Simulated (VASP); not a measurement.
# Pressure, energy and band gap of zinc-blende SiC against volume at the PBE level

Pressure, energy and band gap are calculated for zinc-blende SiC at seven volumes, from about 6% below to 6% above the equilibrium volume of 10.50 Å³ per atom. The question is how each quantity responds to uniform scaling, and whether the pressures and energies agree with one another. That agreement matters because the pressure comes from the stress tensor and the energy from the total energy, so each can be used to check the other. Volume changes are measured from the minimum of the fitted energy curve, and energies from the lowest member. Positive pressure means compression. The gap is the smallest one on the k mesh, which is indirect.

## How the numbers were made

A cell from a diffraction database, relaxed at this level and then scaled evenly, fractional positions kept. VASP 6.6.1, plane waves with PAW, PBE, cutoff 520 eV, k mesh 9×9×9, no spin polarisation, no spin-orbit coupling, static lattice. A Birch-Murnaghan fit to the energies has its minimum at 10.50 Å³ per atom.

Notes on method and selection:

- The pressure is that of a finite plane-wave basis, so it need not vanish exactly at the minimum of the energy.
- Only series whose fit has its minimum inside the range and an error under 0.5 meV per atom are shown.
- Where rows or columns differ in functional or spin-orbit coupling, non-spherical gradient terms in the PAW spheres (LASPH) may be on in some and off in others.
- Runs that did not converge, have known faults or may not be shown are not listed, and runs on Ansatz's PAW sets soft_1 and soft_2 are kept to separate tables.

Columns:

- volume change (%): volume relative to the fitted equilibrium volume.
- pressure (GPa): pressure from the stress tensor (positive: compressed).
- energy (meV/atom): energy per atom above the lowest point of the series.
- gap (eV): smallest gap on the k mesh.

Input lines of one member:

```
PREC = Accurate
ENCUT = 520
EDIFF = 1E-06
NELM = 100
ISMEAR = 0
SIGMA = 0.05
LREAL = .FALSE.
ALGO = Normal
GGA = PE
NBANDS = 10
LORBIT = 11
KPAR = 2
ISIF = 2
```

Command (options for logging and memory left out): `mpirun -np 2 vasp_std`

## Computed values

| member | volume change (%) | pressure (GPa) | energy (meV/atom) | gap (eV) |
| --- | --- | --- | --- | --- |
| 9.87 Å³ | −6.02 | 14.83 | 27.9 | 1.465 |
| 10.08 Å³ | −4.02 | 9.39 | 12.0 | 1.482 |
| 10.29 Å³ | −2.02 | 4.47 | 2.9 | 1.498 |
| 10.50 Å³ | −0.02 | 0.00 | 0.0 | 1.513 |
| 10.71 Å³ | 1.98 | −4.04 | 2.6 | 1.527 |
| 10.92 Å³ | 3.98 | −7.71 | 10.3 | 1.541 |
| 11.13 Å³ | 5.98 | −11.03 | 22.6 | 1.553 |

pressure (GPa) against volume change (%):

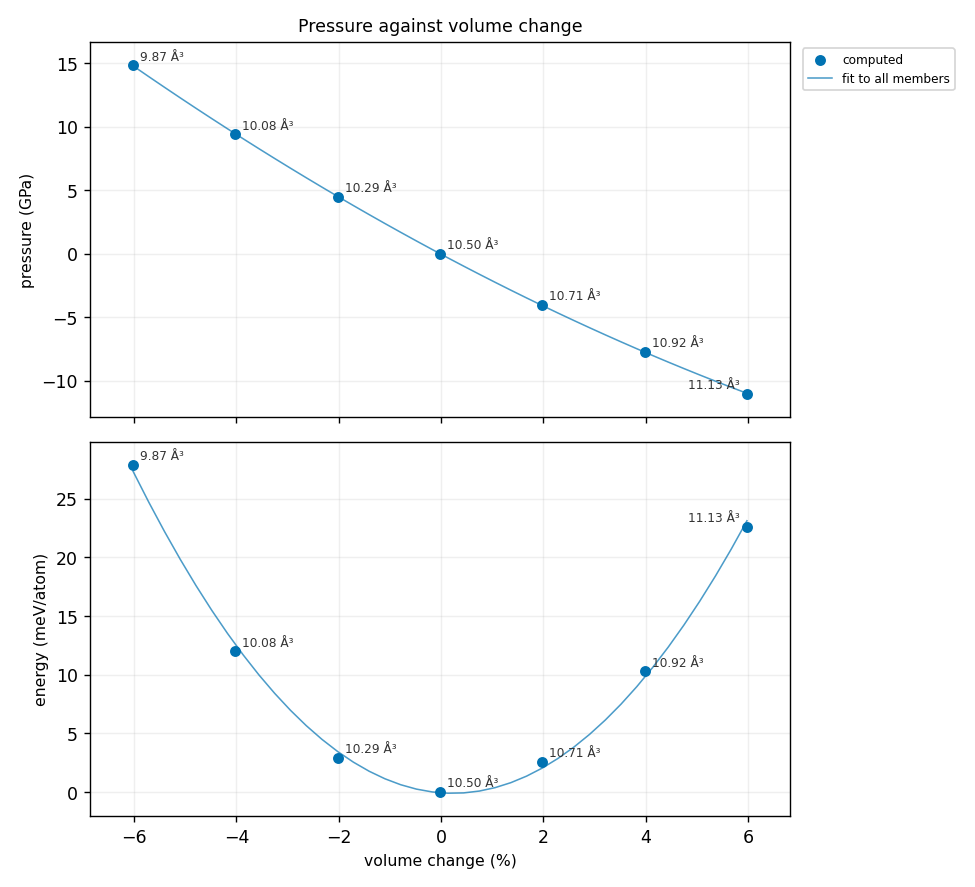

Least-squares fits to the whole series, with x = volume change (%); R² and errors in the fitted variable (y, or ln y where the fit is in ln y):

| y | members | fit | R² | rms residual | leave-one-out rms | the same for the mean of the others |
| --- | --- | --- | --- | --- | --- | --- |
| pressure (GPa) | 7 | y = −0.04199 − 2.146 x + 0.05271 x² | 1.00 | 0.039 | 0.10 | 10 |
| energy (meV/atom) | 7 | y = −0.05910 − 0.3219 x + 0.7024 x² | 1.00 | 0.51 | 1.4 | 11 |

## Why the values move as they do

As the cell expands, the pressure falls from 14.83 to −11.03 GPa and the gap widens from 1.465 to 1.553 eV. The energy rises on both sides of equilibrium, more steeply under compression: 27.9 meV/atom at −6.02% against 22.6 at +5.98%. Shortening the Si–C bonds raises the repulsion between overlapping electron shells faster than lengthening them weakens the attraction.

A model with two parameters, the bulk modulus B₀ and its pressure derivative B′, follows from three assumptions.

1. The energy depends on volume alone, so P = −dE/dV. Symmetry fixes both atoms on their sites, and scaling leaves no internal coordinate to relax.
2. The pressure is zero at the energy minimum, V₀.
3. The bulk modulus grows linearly with pressure: −V dP/dV = B₀ + B′P.

With e = V/V₀ − 1, the third assumption gives a first derivative dP/de = −B₀ at e = 0. Differentiating once more gives B₀(B′ + 1) there. To second order, therefore,

P = −B₀e + ½B₀(B′ + 1)e².

With x = 100e, the volume change in percent, this becomes

P = −ax + bx², where a = B₀/100 and b = B₀(B′ + 1)/20000.

Integrating −P dV from the minimum gives the energy per atom:

E = (V₀/100)(ax²/2 − bx³/3).

Since 1 GPa Å³ is 6.242 meV, the prefactor is 10.50 × 6.242 / 100 = 0.6554 meV per GPa. The cubic term carries the asymmetry of the energy curve.

The gap lies outside this model. It widens on expansion, as is usual for gaps between the valence top at Γ and conduction valleys near X in tetrahedral semiconductors. A likely reason is that these valley states are less strongly antibonding between neighbours than the conduction state at Γ. The smallest direct gap on the same mesh narrows instead, although it ends at the same conduction valley. It starts from a valence state near X, which lies below the valence top at Γ. Expansion weakens the overlap between orbitals and narrows the valence band, so this state moves closer to the top.

## Fixing and testing the model

The members at 10.08 and 10.92 Å³ fix the two parameters through P/x = −a + bx:

- 9.39 / (−4.02) = −2.3358 and −7.71 / 3.98 = −1.9372
- distance between the two members in x: 3.98 + 4.02 = 8.00 percent
- b = (2.3358 − 1.9372) / 8.00 = 0.04983 GPa per percent squared
- a = 1.9372 + 0.04983 × 3.98 = 2.1355 GPa per percent

Hence B₀ = 100 × 2.1355 = 214 GPa and B′ = 200 × 0.04983 / 2.1355 − 1 = 3.7.

Pressures of three other members:

- 9.87 Å³: 2.1355 × 6.02 + 0.04983 × 6.02² = 14.66 GPa; table 14.83.
- 10.29 Å³: 2.1355 × 2.02 + 0.04983 × 2.02² = 4.52 GPa; table 4.47.
- 11.13 Å³: −2.1355 × 5.98 + 0.04983 × 5.98² = −10.99 GPa; table −11.03.

The same constants give their energies:

- 9.87 Å³: 0.6554 × (2.1355 × 6.02² / 2 + 0.04983 × 6.02³ / 3) = 27.7 meV/atom; table 27.9.
- 10.29 Å³: 0.6554 × (2.1355 × 2.02² / 2 + 0.04983 × 2.02³ / 3) = 2.9 meV/atom; table 2.9.
- 11.13 Å³: 0.6554 × (2.1355 × 5.98² / 2 − 0.04983 × 5.98³ / 3) = 22.7 meV/atom; table 22.6.

No energy difference was used to set a or b; the energies enter only through V₀. Stress and total energy are therefore consistent to within 0.2 meV/atom for these members.

For the gap, a separate straight line through the same two members has a slope of (1.541 − 1.482) / 8.00 = 0.0074 eV per percent. The outermost members lie 2 percent further out, so the line gives 1.482 − 0.0074 × 2 = 1.467 eV at 9.87 Å³ and 1.541 + 0.0074 × 2 = 1.556 eV at 11.13 Å³, against 1.465 and 1.553 in the table. Both estimates are slightly high because the gap widens more slowly as the cell expands.

## Exceptions

Largest departures from the fit to the whole series:

| member | pressure (GPa) | fit | computed − fit | in rms residuals |
| --- | --- | --- | --- | --- |
| 10.08 Å³ | 9.39 | 9.44 | −0.05 | 1.2 |
| 10.71 Å³ | −4.04 | −4.08 | +0.04 | 1.1 |
| 9.87 Å³ | 14.83 | 14.79 | +0.04 | 1.1 |
| 11.13 Å³ | −11.03 | −10.99 | −0.04 | 1.0 |

The largest pressure departure, computed minus model, is +0.17 GPa at 9.87 Å³. Here the second-order expansion begins to fall short. The next term, −B₀(B′ + 1)(B′ + 2)e³/6, is about +0.2 GPa at this compression, and the two fixed members absorb a little under half of it. Most of the remaining departure comes from the small pressure offset described next, which shifts the fitted b.

At 10.50 Å³ the model gives +0.04 GPa and the table 0.00, so the assumption of zero pressure exactly at the energy minimum is slightly off. The finite plane-wave basis can cause such an offset, as can a small error in the fitted minimum. The offset also affects the curvature: the tabulated pressure fit, which has a free constant, gives B′ = 200 × 0.05271 / 2.146 − 1 = 3.9.

The tabulated quadratic fit to the energy has a different fault. Its slope at x = 0, −0.3219 meV per percent, would imply a pressure of 0.3219 / 0.6554 = 0.49 GPa. That slope mainly stands in for the missing cubic term.

## Conclusions and limits

Within about 6% of equilibrium, two constants taken from two pressures reproduce the other pressures to within 0.2 GPa and also give the energy curve. The gap widens by about 0.007 eV per percent of expansion, or 0.088 eV over the whole series.

The absolute gaps are much less certain than this change. PBE places the gap of such a semiconductor too low, by roughly 1 eV. The k mesh acts the other way: it misses the conduction minimum at X, so the tabulated gaps lie above the true indirect PBE gap.

[Logs are printed without paths, hosts, clocks, repeated set-up lines and the standing remarks that a program may print on its own settings, such as how far it seeks lower states.]
